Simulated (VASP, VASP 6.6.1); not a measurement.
# Working log: relaxing the hcp titanium cell in VASP

*A beginner's notebook, kept as written. Several of its settings and conclusions are unsound; a review follows at the end.*

## Background

I have two X-ray values for titanium, both from Rietveld refinement. The $a$ axis, 2.951 Å, was measured on commercial powder with grains below 45 µm, before anything was added to it; the purity is not given with the value and the scan was a fast laboratory one ("Residual Stress Induced by Addition of Nanosized TiC in Titanium Matrix Composite", 2022, PubMed Central 8999256). The $c$ axis, 4.685 Å, was measured at room temperature on a recrystallized plate containing 600 wppm oxygen ("Impact of oxygen ordering on titanium lattice parameters", 2024, arXiv:2402.07147). So the two axes come from two different samples. My starting cell has $a$ = 2.950 Å and $c$ = 4.686 Å, which is nearly the same.

| compared with | measured | source's wording or label | T (K) | method |
| --- | --- | --- | --- | --- |
| lattice constant a of the conventional cell (Å) | 2.951 | a of alpha-Ti | – | XRD, Rietveld refinement |
| lattice constant c of the conventional cell (Å) | 4.685 | c of hcp cell | room temperature | XRD, Rietveld refinement |

Conditions are those given with the value in the passage it was taken from; "not stated" means there, and the paper may say more elsewhere.

## Strategy

I want to get $a$ and $c$ of titanium out of a relaxation and compare them with the X-ray numbers. The cell has two atoms, and I let both the cell and the atoms move. My target is 0.01 Å on each axis. I chose that because it looks like a small number next to the axes themselves.

I will use PBEsol, because the name says it is for solids and titanium is a solid. If the first result is off, I will change settings until it fits.

System: Ti, space group P6_3/mmc (Titanium); P6_3/mmc (No. 194), 2 atoms in the cell; conventional a = 2.950, c = 4.686 A, from a published structure refinement (COD).

On the selection of runs and values: 1 further cited values are not listed: repeats, values quoted from earlier work, more than five for one quantity or six quantities, optical onsets of an indirect gap, modes that a denser mesh moves by over 3 %, or quantities that fewer than three runs give.

## 1. A quick first relaxation

I am starting with a cutoff of 150 eV so that the job finishes fast. The k mesh is 18x18x10, which looks like a lot of points, and I think that should make up for the low cutoff. The starting cell is already almost the measured one, so I expect the relaxation to stay close to it.

**Run 1.** VASP 6.6.1: PBEsol; 150 eV, 18x18x10 k mesh; cell and atoms relaxed, LASPH on.

Key lines of the input:
```
ALGO = Normal
EDIFF = 1E-06
EDIFFG = -0.006
ENCUT = 150
GGA = PS
IBRION = 2
ISIF = 3
ISMEAR = 1
LASPH = .TRUE.
NBANDS = 18
NELM = 60
NSW = 50
PREC = Normal
SIGMA = 0.15
KPOINTS: Gamma, 18 18 10
PAW data sets: Ti_sv (PBE 64)
```

Command:
```
mpirun -np 8 vasp_std
```

Selected lines of the output:
```
|     LAPACK: Routine ZPOTRF failed! kpoint: 1 spin: 1                        |
|     Possible solutions for this issue are:                                  |
|     - Please check whether the atoms are too close to each other.           |
|     - Decreasing POTIM might help during relaxations or MDs.                |
|     - Deleting CHGCAR or WAVECAR if incompatible with the structure.        |
|     - Try calculating without symmetrizing (ISYM = 0 or ISYM = -1).         |
|     - As last resort: using a different PAW for some of the atoms.          |
DAV:  16    -0.135330245131E+02    0.63361E-06   -0.13374E-08  4346   0.600E-04
   1 F= -.13533025E+02 E0= -.13533876E+02  d E =-.135330E+02
 curvature:   0.00 expect dE= 0.000E+00 dE for cont linesearch  0.000E+00
 trial: gam= 0.00000 g(F)=  0.262E-43 g(S)=  0.194E+03 ort = 0.000E+00 (trialstep = 0.100E+01)
 search vector abs. value=  0.194E+03
 bond charge predicted
```

Ended with an error; 8.6 s on 8 cores of Intel Xeon 6975P-C (Granite Rapids), shared host.

The job stopped with an error after 8.6 s, so I have no lattice constants. The message says a LAPACK routine failed, and the first thing it tells me to check is whether the atoms are too close to each other. I take that as the reason. The starting cell comes from a published refinement, so I think the published cell must be slightly too tight for VASP. One energy did come out before the crash, about -13.53 eV, so the electronic part is fine and the cutoff is not the problem.

## 2. Lower precision to get past the error

If the atoms are a little too close, a less strict calculation should not mind so much. I am setting PREC to Low and, since I am editing the file anyway, the cutoff to 220 eV. I expect the cell to open up a bit in the first steps and then settle near the X-ray values.

**Run 2.** VASP 6.6.1: PBEsol; 220 eV, 18x18x10 k mesh; cell and atoms relaxed, PREC = Low, LASPH on.

Key lines of the input, as changed from run 1:
```diff
- ENCUT = 150
+ ENCUT = 220
- PREC = Normal
+ PREC = Low
```

Selected lines of the output:
```
 reached required accuracy - stopping structural energy minimisation
  external PRESSURE =       0.1536359 kB  Pullay stress =       0.0000000 kB
  volume of cell :       31.73
```

Converged; took 22 s.

| quantity | run 2 | measured | deviation |
| --- | --- | --- | --- |
| lattice constant a of the conventional cell (Å) | 2.847 | 2.951 | −0.104 (−3.5 %) |
| lattice constant c of the conventional cell (Å) | 4.519 | 4.685 | −0.166 (−3.5 %) |
| volume of the conventional cell (Å³) | 31.73 |  |  |
| space group at the end | P6_3/mmc |  |  |
| pressure left at the end (GPa) | 0.0154 |  |  |

This time it worked. The output says "reached required accuracy" and the pressure left is only 0.0154 GPa, so I take these as the real PBEsol lattice constants. Both axes are 3.5 % too short: $a$ is 2.847 Å and $c$ is 4.519 Å. I had expected the cell to open up, but it shrank. Since both axes are off by the same percentage, the shape is right and the cell only needs to be made bigger. Lowering the precision cured the crash, so the settings are fine now.

## 3. Adding pressure to open the cell

There is a tag called PSTRESS that adds a pressure to the relaxation. A tyre gets bigger when there is more pressure in it, so I am setting PSTRESS to 100 to push the cell outwards. I am also putting the cutoff at 450 eV and PREC back to Normal, to have a cleaner run for the final numbers. I expect both axes to grow by about the missing 3.5 %.

**Run 3.** VASP 6.6.1: PBEsol; 450 eV, 18x18x10 k mesh; cell and atoms relaxed, PSTRESS = 100, LASPH on.

Key lines of the input, as changed from run 1:
```diff
- ENCUT = 150
+ ENCUT = 450
- PREC = Normal
+ PREC = Accurate
+ PSTRESS = 100
```

Selected lines of the output:
```
 reached required accuracy - stopping structural energy minimisation
  external PRESSURE =      -0.2160446 kB  Pullay stress =     100.0000000 kB
  volume of cell :       30.97
```

Converged; took 25 s.

| quantity | run 3 | measured | deviation |
| --- | --- | --- | --- |
| lattice constant a of the conventional cell (Å) | 2.826 | 2.951 | −0.125 (−4.3 %) |
| lattice constant c of the conventional cell (Å) | 4.480 | 4.685 | −0.205 (−4.4 %) |
| volume of the conventional cell (Å³) | 30.97 |  |  |
| space group at the end | P6_3/mmc |  |  |
| pressure left at the end (GPa) | 9.9784 |  |  |

The cell got smaller again instead of bigger: $a$ is now 2.826 Å and $c$ is 4.480 Å. So PSTRESS squeezes the cell, and the tyre picture was the wrong way round. Compared with the run before, $a$ changed by only 0.021 Å, so I conclude that 100 kB is a small effect for a metal and that the pressure is not what makes my cell too short. The higher cutoff did not bring the axes back either, so I can rule that out too. What all my finished runs have in common is that they start from nearly the right cell and then shrink away from it. I think the relaxation simply goes on for too long.

## 4. Stopping the relaxation earlier

I am taking PSTRESS out again and setting NELM to 4. NELM is the maximum number of steps, so the cell should have only four steps in which to shrink. Since it starts at 2.950 Å and 4.686 Å, I expect it to stop close to the X-ray values.

**Run 4.** VASP 6.6.1: PBEsol; 450 eV, 18x18x10 k mesh; cell and atoms relaxed, NELM = 4, LASPH on.

Key lines of the input, as changed from run 3:
```diff
- NELM = 60
- NSW = 50
+ NELM = 4
+ NSW = 30
- PSTRESS = 100
```

Selected lines of the output:
```
|     LAPACK: Routine ZPOTRF failed! kpoint: 1 spin: 1                        |
|     Possible solutions for this issue are:                                  |
|     - Please check whether the atoms are too close to each other.           |
|     - Decreasing POTIM might help during relaxations or MDs.                |
|     - Deleting CHGCAR or WAVECAR if incompatible with the structure.        |
|     - Try calculating without symmetrizing (ISYM = 0 or ISYM = -1).         |
|     - As last resort: using a different PAW for some of the atoms.          |
DAV:   4    -0.190523444278E+02   -0.11794E+01   -0.11780E+01  9102   0.262E+01
   1 F= -.19052344E+02 E0= -.19052541E+02  d E =-.190523E+02
 curvature:   0.00 expect dE= 0.000E+00 dE for cont linesearch  0.000E+00
 trial: gam= 0.00000 g(F)=  0.444E-46 g(S)=  0.274E+03 ort = 0.000E+00 (trialstep = 0.100E+01)
 search vector abs. value=  0.274E+03
 bond charge predicted
```

Ended with an error; took 9.8 s.

The job crashed with the same LAPACK message as my first one, so again I have no lattice constants. It did do its four steps, and the energy at the end of them is -19.05 eV. That is lower than in any run before, and a lower energy is better, so I think four steps are enough for titanium and the crash has to do with the starting cell. The message asks about atoms too close to each other, as it did the first time. That fits my idea that the published cell is too tight for VASP.

I still believe the 2.847 Å from my second run is what PBEsol gives for $a$. Since neither the pressure nor the number of steps has brought the cell back to the X-ray size, the functional must be missing something.

## 5. Adding a correction to PBEsol

There is a correction called D3(BJ) that can be switched on together with PBEsol. It is for van der Waals forces, which act between atoms at a distance, and my atoms end up at the wrong distance. A correction should move a wrong result towards the right one, so I expect both axes to get longer. I am putting NELM back to 60, and I will relax the cell twice so that the correction has time to work.

**Run 5.** VASP 6.6.1: PBEsol + D3(BJ); 450 eV, 18x18x10 k mesh; cell and atoms relaxed, relaxed twice, LASPH on.

Key lines of the input, as changed from run 3:
```diff
+ IVDW = 12
- NELM = 60
+ NELM = 100
- PSTRESS = 100
```

Selected lines of the output:
```
 reached required accuracy - stopping structural energy minimisation
  volume of cell :       31.59
```

Converged; took 46 s (all steps together).

| quantity | run 5 | measured | deviation |
| --- | --- | --- | --- |
| lattice constant a of the conventional cell (Å) | 2.844 | 2.951 | −0.107 (−3.6 %) |
| lattice constant c of the conventional cell (Å) | 4.509 | 4.685 | −0.176 (−3.8 %) |
| volume of the conventional cell (Å³) | 31.59 |  |  |
| space group at the end | P6_3/mmc |  |  |
| pressure left at the end (GPa) | −0.0024 |  |  |

The correction did not make the cell longer. $a$ is 2.844 Å and $c$ is 4.509 Å, almost the same as in my second run, where they were 2.847 Å and 4.519 Å. I conclude that D3(BJ) does nothing in a metal, and that the low-precision run was right all along, since a much more careful one has now confirmed it.

With two runs agreeing this well, I no longer think the calculation is at fault. The plate used for $c$ had oxygen in it, and the purity of the powder used for $a$ is not given. Foreign atoms need room, so I think they have swollen both samples by nearly 4 %, and pure titanium is really about 2.84 Å along $a$.

## 6. A second opinion from BLYP

I want one more functional to back up the 2.84 Å. I am taking BLYP because I have seen the name in many chemistry papers, so it must be well tested. I am leaving D3(BJ) out, since it made no difference. Titanium is the same element whichever functional I use, so I expect about 2.84 Å and 4.51 Å again.

**Run 6.** VASP 6.6.1: BLYP; 450 eV, 18x18x10 k mesh; cell and atoms relaxed, relaxed twice, LASPH on.

Key lines of the input, as changed from run 5:
```diff
+ AGGAC = 1
+ AGGAX = 1
+ ALDAC = 0
+ ALDAX = 1
- GGA = PS
+ GGA = B5
- IVDW = 12
```

Selected lines of the output:
```
 reached required accuracy - stopping structural energy minimisation
  volume of cell :       35.47
```

Converged; took 56 s (all steps together).

| quantity | run 6 | measured | deviation |
| --- | --- | --- | --- |
| lattice constant a of the conventional cell (Å) | 2.958 | 2.951 | +0.007 (+0.2 %) |
| lattice constant c of the conventional cell (Å) | 4.681 | 4.685 | −0.004 (−0.1 %) |
| volume of the conventional cell (Å³) | 35.47 |  |  |
| space group at the end | P6_3/mmc |  |  |
| pressure left at the end (GPa) | −0.0232 |  |  |

I did not expect this. BLYP gives $a$ = 2.958 Å and $c$ = 4.681 Å, so both axes are inside my 0.01 Å target. But it disagrees with the 2.84 Å that I had from two PBEsol runs, and titanium can only have one size. BLYP is the odd one out here. I also know it from papers about molecules, and titanium is a solid, so I think it landed on the X-ray values by accident. I am keeping the idea that the two samples were swollen by foreign atoms.

## 7. Back to PBEsol to settle it

I have two results for the short cell and one for the long one, and a third PBEsol result would settle it. My second run used a cutoff of 220 eV and worked well, so I am staying near that with 270 eV, and relaxing twice as in the last two runs. If $a$ comes out near 2.84 Å again, I will take that as the lattice constant of pure titanium.

**Run 7.** VASP 6.6.1: PBEsol; 270 eV, 18x18x10 k mesh; cell and atoms relaxed, relaxed twice, LASPH on.

Key lines of the input, as changed from run 5:
```diff
- ENCUT = 450
+ ENCUT = 270
- IVDW = 12
```

Selected lines of the output:
```
 reached required accuracy - stopping structural energy minimisation
  external PRESSURE =      -0.0071109 kB  Pullay stress =       0.0000000 kB
  volume of cell :       33.12
```

Converged; took 39 s (all steps together).

| quantity | run 7 | measured | deviation |
| --- | --- | --- | --- |
| lattice constant a of the conventional cell (Å) | 2.890 | 2.951 | −0.061 (−2.1 %) |
| lattice constant c of the conventional cell (Å) | 4.579 | 4.685 | −0.106 (−2.3 %) |
| volume of the conventional cell (Å³) | 33.12 |  |  |
| space group at the end | P6_3/mmc |  |  |
| pressure left at the end (GPa) | −0.0007 |  |  |

This did not settle it the way I wanted. $a$ is 2.890 Å and $c$ is 4.579 Å, so the cell is longer than in my second run, by 0.043 Å along $a$, but still shorter than the X-ray values. I had said I would accept 2.84 Å if it came out again, and it did not.

The pressure left at the end is -0.0007 GPa, the closest to zero of all my finished runs. A cell with no pressure in it must be the right one, so I am taking 2.890 Å and 4.579 Å as my lattice constants for pure titanium. They also lie between the short cell and the BLYP one, which seems a reasonable place for the truth to be. Both axes miss my 0.01 Å target, but I put that down to the foreign atoms in the samples, which now only have to explain a little over 2 % instead of nearly 4 %.

## Results at a glance

| run | settings | lattice constant a of the conventional cell (Å) | deviation | lattice constant c of the conventional cell (Å) | deviation | cost | status |
| --- | --- | --- | --- | --- | --- | --- | --- |
| 1 | PBEsol, 150 eV | – |  | – |  | 69 core-s | ended with an error |
| 2 | PBEsol, 220 eV, PREC = Low | 2.847 | −0.104 (−3.5 %) | 4.519 | −0.166 (−3.5 %) | 2.9 core-min |  |
| 3 | PBEsol, 450 eV, PSTRESS = 100 | 2.826 | −0.125 (−4.3 %) | 4.480 | −0.205 (−4.4 %) | 3.3 core-min |  |
| 4 | PBEsol, 450 eV, NELM = 4 | – |  | – |  | 78 core-s | ended with an error |
| 5 | PBEsol + D3(BJ), 450 eV, relaxed twice | 2.844 | −0.107 (−3.6 %) | 4.509 | −0.176 (−3.8 %) | 6.2 core-min |  |
| 6 | BLYP, 450 eV, relaxed twice | 2.958 | +0.007 (+0.2 %) | 4.681 | −0.004 (−0.1 %) | 7.5 core-min |  |
| 7 | PBEsol, 270 eV, relaxed twice | 2.890 | −0.061 (−2.1 %) | 4.579 | −0.106 (−2.3 %) | 5.3 core-min |  |
|  | measured | 2.951 |  | 4.685 |  |  |  |

The runs in order, against the measurement:

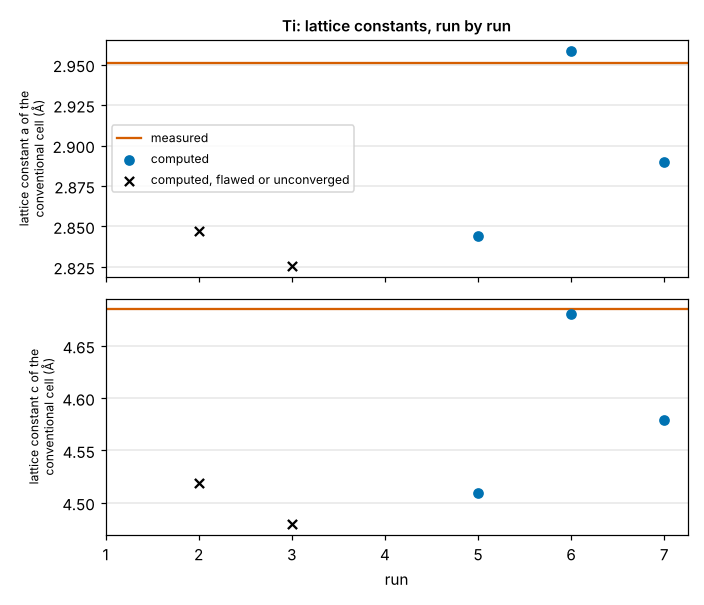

## State of play

I am closing the log with $a$ = 2.890 Å and $c$ = 4.579 Å for pure titanium, from my last PBEsol run. It had the smallest pressure left at the end, and it is the newest, so I trust it most. It is 0.061 Å short of the X-ray value along $a$ and 0.106 Å short along $c$, which misses my target of 0.01 Å on both axes. I explain the difference by foreign atoms in the two samples.

BLYP came within 0.01 Å on both axes, but I am not using it, because it is for molecules and none of my PBEsol runs agree with it. The two crashes I put down to the published starting cell being too tight for VASP.

I still don't know why PBEsol gave me a different cell each time it finished. Perhaps the program is a bit random for metals. If I had to do it again, I would stay with PBEsol at 270 eV and start from a larger cell, so that the atoms are not too close at the beginning.

## An expert's review

Further runs made for the review:

| reviewer's run | settings | lattice constant a of the conventional cell (Å) | deviation | lattice constant c of the conventional cell (Å) | deviation | cost |
| --- | --- | --- | --- | --- | --- | --- |
| R1 | PBEsol, 450 eV, relaxed twice | 2.895 | −0.056 (−1.9 %) | 4.582 | −0.103 (−2.2 %) | 6.2 core-min |
| R2 | RPBE, 450 eV, relaxed twice | 2.961 | +0.010 (+0.4 %) | 4.684 | −0.001 (−0.0 %) | 4.8 core-min |
| R3 | PBE, 450 eV, relaxed twice | 2.933 | −0.018 (−0.6 %) | 4.641 | −0.044 (−0.9 %) | 5.8 core-min |
|  | measured | 2.951 |  | 4.685 |  |  |

The notebook rightly notes that its two axes come from different samples. Its 0.01 Å target is arbitrary: functionals commonly err by roughly 1 %, several times as much. Changing settings until a result fits tests nothing.

Run 1's 150 eV is far too low for a cell relaxation, and a dense k mesh cannot compensate. The enormous initial stress was a sign of this; one printed energy does not clear the cutoff. The LAPACK advice is generic, and the published cell is not too tight: the runs already started from it stretched by 3 % in volume.

Run 2 probably survived through its higher cutoff, not its lower precision. Its small pressure is only as good as its poor basis. Sound PBEsol at 450 eV (R1) gives $a$ = 2.895 Å and $c$ = 4.582 Å for 6.2 core-minutes instead of 2.9, so run 2 is 0.048 Å too short along $a$.

Run 3 used PREC = Accurate, not Normal. The author correctly learned that PSTRESS compresses, but against R1 it shortens $a$ by about 0.07 Å, which is not small. Comparison with flawed run 2 hid this and could not rule out the cutoff. Nor does relaxation last too long: it seeks the functional's own minimum.

In run 4, NELM limits electronic steps, not cell steps. The energy was still changing by over 1 eV, so its low value meant nothing and the stress was unusable. Keeping NELM at 60 would have cost minutes at most.

Run 5 (NELM 100, not 60) shows that D3(BJ) does act: it shortens PBEsol's $a$ by 0.051 Å relative to R1. Its agreement with run 2 is chance. This says nothing about D3(BJ) with BLYP, which was not tested. The second relaxation renews the basis for the changed cell; it does not give the correction time. Foreign atoms are no explanation either: interstitial impurities barely affect $a$, and a little oxygen expands $c$ only very slightly.

Run 6 is numerically sound, and different functionals may give different cells. The author's suspicion of luck is fair, since BLYP does not describe the uniform electron gas correctly, but disagreement with PBEsol is no proof. RPBE (R2) also gives a long cell, 2.961 Å and 4.684 Å.

Run 7 lies within 0.005 Å of R1 on both axes, but 450 eV is safer and costs little more. Neither low pressure, being newest nor lying between other results proves a value true. The PBEsol results varied through cutoff, precision, pressure and dispersion, not randomness.

PBEsol is sound here but about 2 % short on both axes. PBE (R3) comes within 1 %, at 2.933 Å and 4.641 Å; RPBE and BLYP come closest, though for BLYP this may be luck. Thermal expansion, missing from all runs, explains only roughly 0.2 %. The sound runs disagree with one another, so they give no reason to doubt the measurements. The remaining PBEsol error belongs mainly to the functional: its gradient correction to exchange is weaker than PBE's, which generally shortens lattice constants, and for titanium PBE is already slightly short.

[Logs are printed without paths, hosts, clocks, repeated set-up lines and the standing remarks that a program may print on its own settings, such as how far it seeks lower states.]

[The runs shown are a pick from a larger set of finished runs; failed, doubtful and other runs were left out of it ahead of writing. So were measured values far from every level or from commonly accepted values, and agreement can look better than it is. Lines of input and output are excerpts and may be shortened.]
